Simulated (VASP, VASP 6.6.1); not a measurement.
# Lattice constants of NiSi from PBE and PBEsol: steady volume, mesh-dependent axes

## Background

The reference is the NiSi end member of a solid-solution series, from "Experimental and First principle calculation of Co_xNi_{(1-x)}Si solid solution structural stability" (2007, arXiv:0710.4012). The sample was arc melted and annealed at 900 C, and the cell came from a full-profile refinement of powder X-ray diffraction data: $a = 5.1818$, $b = 3.334$ and $c = 5.619$ Å in the $Pnma$ setting. The measurement temperature is not given with the values; I take it to be room temperature. Two other powder refinements give $a = 5.178$ and $5.186$ Å, and one of them gives $b = 3.331$ Å, so the scatter among these samples is far below one per cent. The refined cell from which I start the structure is slightly smaller than the reference along all three axes.

| compared with | measured | source's wording or label | method |
| --- | --- | --- | --- |
| lattice constant a of the conventional cell (Å) | 5.1818 | a, Pnma setting | powder XRD, full-profile refinement * |
| lattice constant b of the conventional cell (Å) | 3.334 | b, Pnma setting | powder XRD, full-profile refinement * |
| lattice constant c of the conventional cell (Å) | 5.619 | c, Pnma setting | powder XRD, full-profile refinement |
| lattice constant a of the conventional cell (Å) | 5.178 | a, Pnma setting | powder XRD, Rietveld refinement |
| lattice constant a of the conventional cell (Å) | 5.186 | a, Pnma setting | powder XRD, Rietveld refinement |
| lattice constant b of the conventional cell (Å) | 3.331 | b, Pnma setting | powder XRD, Rietveld refinement |

Where a quantity has several values, deviations refer to the one marked *.

Conditions are those given with the value in the passage it was taken from; "not stated" means there, and the paper may say more elsewhere. The values are a selection: others may have been left out beforehand as unlike or outlying.

## Strategy

I want the three lattice constants of NiSi, each within 1 % of the reference. That is about what a good semilocal functional can deliver for a transition-metal compound, and it is wide enough to hold the thermal shift, which I expect to be a few tenths of a per cent. The shift has a direction: $a$ and $c$ grow on heating while $b$ shrinks, so a static calculation should come out somewhat short in $a$ and $c$ and somewhat long in $b$ against a room-temperature cell.

The model is the eight-atom $Pnma$ cell, stretched by 3 % in volume at the start, with cell and atoms relaxed twice. NiSi is conventionally treated as nonmagnetic; I start from alternating moments on Ni so that a magnetic solution has a chance to appear.

I go straight to PBE. LDA is no dearer in kind but overbinds 3d metals, and PBEsol, good for many solids, also tends to make them too small. PBEsol will serve as the neighbouring level, and there I will test the k mesh and the cutoff. The mesh concerns me most, since this is a metal run with narrow Gaussian smearing.

System: SiNi; Pnma (No. 62), 8 atoms in the cell; conventional a = 5.175, b = 3.332, c = 5.609 A, from a published structure refinement (COD).

On the selection of runs and values: 1 further cited values are not listed: repeats, values quoted from earlier work, more than five for one quantity or six quantities, or quantities that fewer than three runs give.

## 1. PBE first

PBE usually places the bond lengths of late 3d metals well and those of silicon slightly long, so I expect the silicide to land within the target on all three axes, with any excess most likely along $b$. I also want to see whether the starting moments survive.

**Run 1.** VASP 6.6.1: PBE, alternating starting moments; 450 eV, 6x8x6 k mesh; cell and atoms relaxed, relaxed twice, LASPH on.

Key lines of the input:
```
ALGO = Normal
EDIFF = 1E-06
EDIFFG = -0.006
ENCUT = 450
GGA = PE
IBRION = 2
ISIF = 3
ISMEAR = 0
ISPIN = 2
LASPH = .TRUE.
LMAXMIX = 4
MAGMOM = 1 -1 1 -1 0 0 0 0
NBANDS = 40
NELM = 100
NSW = 50
PREC = Accurate
SIGMA = 0.05
KPOINTS: Gamma, 6 8 6
PAW data sets: Ni Si (PBE 64)
```

Command:
```
mpirun -np 8 vasp_std
```

Selected lines of the output:
```
[second pass]
   3 F= -.47599662E+02 E0= -.47599134E+02  d E =-.782962E-05  mag=    -0.0000
 reached required accuracy - stopping structural energy minimisation
     5.205526062 -0.000000000  0.000000000     0.192103543  0.000000000  0.000000000
     0.000000000  3.332269965  0.000000000     0.000000000  0.300095734  0.000000000
     0.000000000  0.000000000  5.634218008     0.000000000  0.000000000  0.177486920
```

Converged; 18 min on 8 cores of AMD EPYC 7R13 (Zen 3), shared host.

| quantity | run 1 | measured | deviation |
| --- | --- | --- | --- |
| lattice constant a of the conventional cell (Å) | 5.2055 | 5.1818 | +0.0237 (+0.5 %) |
| lattice constant b of the conventional cell (Å) | 3.332 | 3.334 | −0.002 (−0.1 %) |
| lattice constant c of the conventional cell (Å) | 5.634 | 5.619 | +0.015 (+0.3 %) |
| largest moment in a PAW sphere (μB) | 0 |  |  |
| volume of the conventional cell (Å³) | 97.73 |  |  |
| space group at the end | Pnma |  |  |
| pressure left at the end (GPa) | 0.0510 |  |  |

All three axes lie within the target, the largest deviation being $+0.5$ % in $a$. I had looked for the excess along $b$; instead $b$ is almost exact, and the surplus sits in $a$ and $c$. The moments have vanished, so from this alternating start PBE relaxes to the nonmagnetic metal that NiSi is conventionally taken to be.

## 2. PBEsol, with mesh and cutoff tests

I now run PBEsol at the same settings as the neighbouring level, then once with a denser k mesh and once with a higher cutoff. I expect PBEsol to shorten every axis, perhaps by about one per cent. The two tests tell me how far sampling and basis move a cell of this metal; strictly they hold for PBEsol, but the potentials and the nonmagnetic metallic state should be much the same, so they are a fair guide to how safe the PBE margins are.

**Run 2.** VASP 6.6.1: PBEsol, alternating starting moments; 450 eV, 6x8x6 k mesh; cell and atoms relaxed, relaxed twice, LASPH on.

Key lines of the input, as changed from run 1:
```diff
- GGA = PE
+ GGA = PS
```

Selected lines of the output:
```
     5.152085209  0.000000000  0.000000000     0.194096169  0.000000000  0.000000000
     0.000000000  3.305128000  0.000000000     0.000000000  0.302560143  0.000000000
     0.000000000  0.000000000  5.553600364     0.000000000  0.000000000  0.180063371
```

Converged; 7.4 min on the same hardware.

**Run 3.** VASP 6.6.1: PBEsol, alternating starting moments; 450 eV, 8x12x8 k mesh; cell and atoms relaxed, relaxed twice, LASPH on.

Key lines of the input, as changed from run 2:
```diff
- KPOINTS: Gamma, 6 8 6
+ KPOINTS: Gamma, 8 12 8
```

Selected lines of the output:
```
  volume of cell :       94.49
     5.087646805 -0.000000000  0.000000000     0.196554525  0.000000000  0.000000000
    -0.000000000  3.361978008  0.000000000     0.000000000  0.297443944  0.000000000
     0.000000000  0.000000000  5.524065217     0.000000000  0.000000000  0.181026103
```

Converged; 25 min on the same hardware.

**Run 4.** VASP 6.6.1: PBEsol, alternating starting moments; 600 eV, 6x8x6 k mesh; cell and atoms relaxed, relaxed twice, LASPH on.

Key lines of the input, as changed from run 2:
```diff
- ENCUT = 450
+ ENCUT = 600
```

Selected lines of the output:
```
     5.152079042  0.000000000  0.000000000     0.194096401  0.000000000  0.000000000
     0.000000000  3.304921313  0.000000000     0.000000000  0.302579065  0.000000000
     0.000000000  0.000000000  5.553568283     0.000000000  0.000000000  0.180064411
```

Converged; 12 min on the same hardware.

| quantity | run 2 | run 3 | run 4 | measured |
| --- | --- | --- | --- | --- |
| lattice constant a of the conventional cell (Å) | 5.1521 | 5.0877 | 5.1521 | 5.1818 |
| lattice constant b of the conventional cell (Å) | 3.305 | 3.362 | 3.305 | 3.334 |
| lattice constant c of the conventional cell (Å) | 5.554 | 5.524 | 5.554 | 5.619 |
| largest moment in a PAW sphere (μB) | 0 | 0 | 0 |  |
| volume of the conventional cell (Å³) | 94.57 | 94.49 | 94.56 |  |
| space group at the end | Pnma | Pnma | Pnma |  |
| pressure left at the end (GPa) | −0.0128 | −0.0163 | 0.0298 |  |

The cutoff is harmless: going to 600 eV moves no axis by more than about 0.0002 Å. The k mesh is not. On the denser mesh PBEsol loses 0.064 Å in $a$ and 0.030 Å in $c$ and gains 0.057 Å in $b$, while the volume changes by only 0.08 Å$^3$. Sampling thus redistributes length among the axes at nearly constant volume, by more than the target allows in $a$ and $b$.

This undermines my first reading of PBE. Its three small deviations were obtained on the coarser of these two meshes, and a shift of this kind could carry an axis out of the target. PBEsol itself misses $c$ on both meshes, and on the denser one it misses $a$ as well.

## 3. A third mesh for the axis ratios

I add a coarser PBEsol mesh, not as a candidate for the answer but to see whether the volume stays put while the axes move again. It cannot establish convergence at the dense end. I expect the axes to shift by at least as much as between the first two meshes, and the volume to suffer less. I leave the other functionals aside, because on the mesh used for PBE their axis ratios would carry the same doubt.

**Run 5.** VASP 6.6.1: PBEsol, alternating starting moments; 450 eV, 3x5x3 k mesh; cell and atoms relaxed, relaxed twice, LASPH on.

Key lines of the input, as changed from run 2:
```diff
- KPOINTS: Gamma, 6 8 6
+ KPOINTS: Gamma, 3 5 3
```

Selected lines of the output:
```
  volume of cell :       94.62
     5.278056865  0.000000000  0.000000000     0.189463665  0.000000000  0.000000000
     0.000000000  3.209021439  0.000000000     0.000000000  0.311621477  0.000000000
     0.000000000  0.000000000  5.586683266     0.000000000  0.000000000  0.178997082
```

Converged; 2 min on the same hardware.

| quantity | run 5 | measured | deviation |
| --- | --- | --- | --- |
| lattice constant a of the conventional cell (Å) | 5.2781 | 5.1818 | +0.0963 (+1.9 %) |
| lattice constant b of the conventional cell (Å) | 3.209 | 3.334 | −0.125 (−3.7 %) |
| lattice constant c of the conventional cell (Å) | 5.587 | 5.619 | −0.032 (−0.6 %) |
| largest moment in a PAW sphere (μB) | 0 |  |  |
| volume of the conventional cell (Å³) | 94.62 |  |  |
| space group at the end | Pnma |  |  |
| pressure left at the end (GPa) | −0.0043 |  |  |

The axes move again, and further than between the first two meshes. From the coarsest mesh to the densest, $a$ falls by 0.190 Å and $b$ grows by 0.153 Å, while the volume changes by only 0.13 Å$^3$. The volume is therefore steady against sampling, but the shape of the cell is not. All three meshes end with almost no residual pressure, so a small final pressure is no sign that the axes are right.

The axes are still drifting in the same direction at the densest mesh, and I can't name a PBEsol limit for them. For PBE the individual axes stay undecided: the agreement belongs to one mesh, and the PBEsol shift beyond that mesh is large enough to spoil it. A denser PBE mesh, with smearing suited to a metal, would be the proper test; it is not shown in this report. Another functional on the same mesh would only add a further set of uncertain axis ratios, so I stop.

## Results at a glance

| run | settings | Q1 | Q2 | Q3 | mean abs. dev. of these columns (%) | cost |
| --- | --- | --- | --- | --- | --- | --- |
| 1 | PBE, 450 eV, 6x8x6 k mesh | 5.2055 | 3.332 | 5.634 | 0.3 | 2.4 core-h |
| 2 | PBEsol, 450 eV, 6x8x6 k mesh | 5.1521 | 3.305 | 5.554 | 0.9 | 59 core-min |
| 3 | PBEsol, 450 eV, 8x12x8 k mesh | 5.0877 | 3.362 | 5.524 | 1.4 | 3.3 core-h |
| 4 | PBEsol, 600 eV, 6x8x6 k mesh | 5.1521 | 3.305 | 5.554 | 0.9 | 1.6 core-h |
| 5 | PBEsol, 450 eV, 3x5x3 k mesh | 5.2781 | 3.209 | 5.587 | 2.1 | 16 core-min |
|  | measured | 5.1818 | 3.334 | 5.619 |  |  |

Q1: lattice constant a of the conventional cell (Å). Q2: lattice constant b of the conventional cell (Å). Q3: lattice constant c of the conventional cell (Å).

The runs in order, against the measurement:

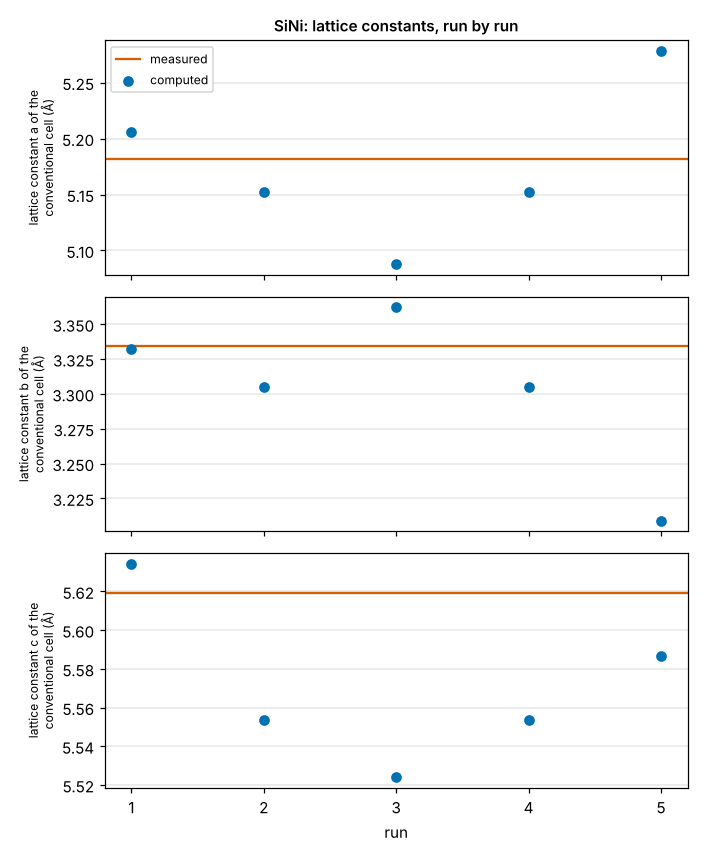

Further runs on the same system, made beside this series (convergence steps with loose settings among them):

| further | settings | Q1 | Q2 | Q3 | mean abs. dev. of these columns (%) | cost |
| --- | --- | --- | --- | --- | --- | --- |
| F1 | r2SCAN, 450 eV, 6x8x6 k mesh | 5.1518 | 3.304 | 5.592 | 0.7 | 2.9 core-h |
| F2 | PBEsol + D3(BJ), 450 eV, 6x8x6 k mesh | 5.1057 | 3.274 | 5.489 | 1.9 | 88 core-min |
| F3 | PBEsol+U (Ni 6.2 eV), 450 eV, 6x8x6 k mesh | 5.0859 | 3.224 | 5.428 | 2.8 | 75 core-min |
| F4 | LDA+U (Ni 6.2 eV), 450 eV, 6x8x6 k mesh | 5.0441 | 3.200 | 5.384 | 3.6 | 1.7 core-h |
| F5 | LDA, 450 eV, 6x8x6 k mesh | 5.1093 | 3.281 | 5.507 | 1.7 | 1.5 core-h |
| F6 | PBEsol, 270 eV, 6x8x6 k mesh | 5.1356 | 3.295 | 5.533 | 1.2 | 38 core-min |
|  | measured | 5.1818 | 3.334 | 5.619 |  |  |

Q1: lattice constant a of the conventional cell (Å). Q2: lattice constant b of the conventional cell (Å). Q3: lattice constant c of the conventional cell (Å).

## How well does the simulation do?

Whether PBE meets the 1 % target on each axis remains undecided. At 450 eV on the 6×8×6 mesh, for 2.4 core-hours, it deviates by $+0.5$, $-0.1$ and $+0.3$ % in $a$, $b$ and $c$, nominally inside on all three. I don't count that as a secured pass, because the axis ratios depend on the mesh.

The mesh test mattered most. Going to the denser mesh, PBEsol lost 0.064 Å in $a$ and gained 0.057 Å in $b$, more than the target allows on either axis, with almost no change in volume. I suspect the combination of narrow Gaussian smearing and a sparsely sampled Fermi surface. The coarsest mesh confirmed the steady volume but could not show where the axes converge. Raising the cutoff to 600 eV changed practically nothing in PBEsol.

The volume is the firmer result. The three PBE deviations add up to about $+0.7$ % in volume, those of PBEsol on the same mesh to about $-2.6$ %. r2SCAN also puts all three axes nominally inside the target there, under the same reservation. LDA comes out too small, and adding D3(BJ) or $U$ to PBEsol shrinks a cell that is already short.

Warming would lengthen $a$ and $c$ and shorten $b$, so allowing for it would slightly widen all three PBE deviations. These few tenths of a per cent can't be weighed while sampling moves the axes by more. The moments vanished from the one alternating start, which fits the conventional nonmagnetic picture but doesn't exclude other magnetic orders. What is needed next is PBE on denser meshes with smearing suited to a metal.

[Logs are printed without paths, hosts, clocks, repeated set-up lines and the standing remarks that a program may print on its own settings, such as how far it seeks lower states.]

[The runs shown are a pick from a larger set of finished runs; failed, doubtful and other runs were left out of it ahead of writing. So were measured values far from every level or from commonly accepted values, and agreement can look better than it is. Lines of input and output are excerpts and may be shortened.]
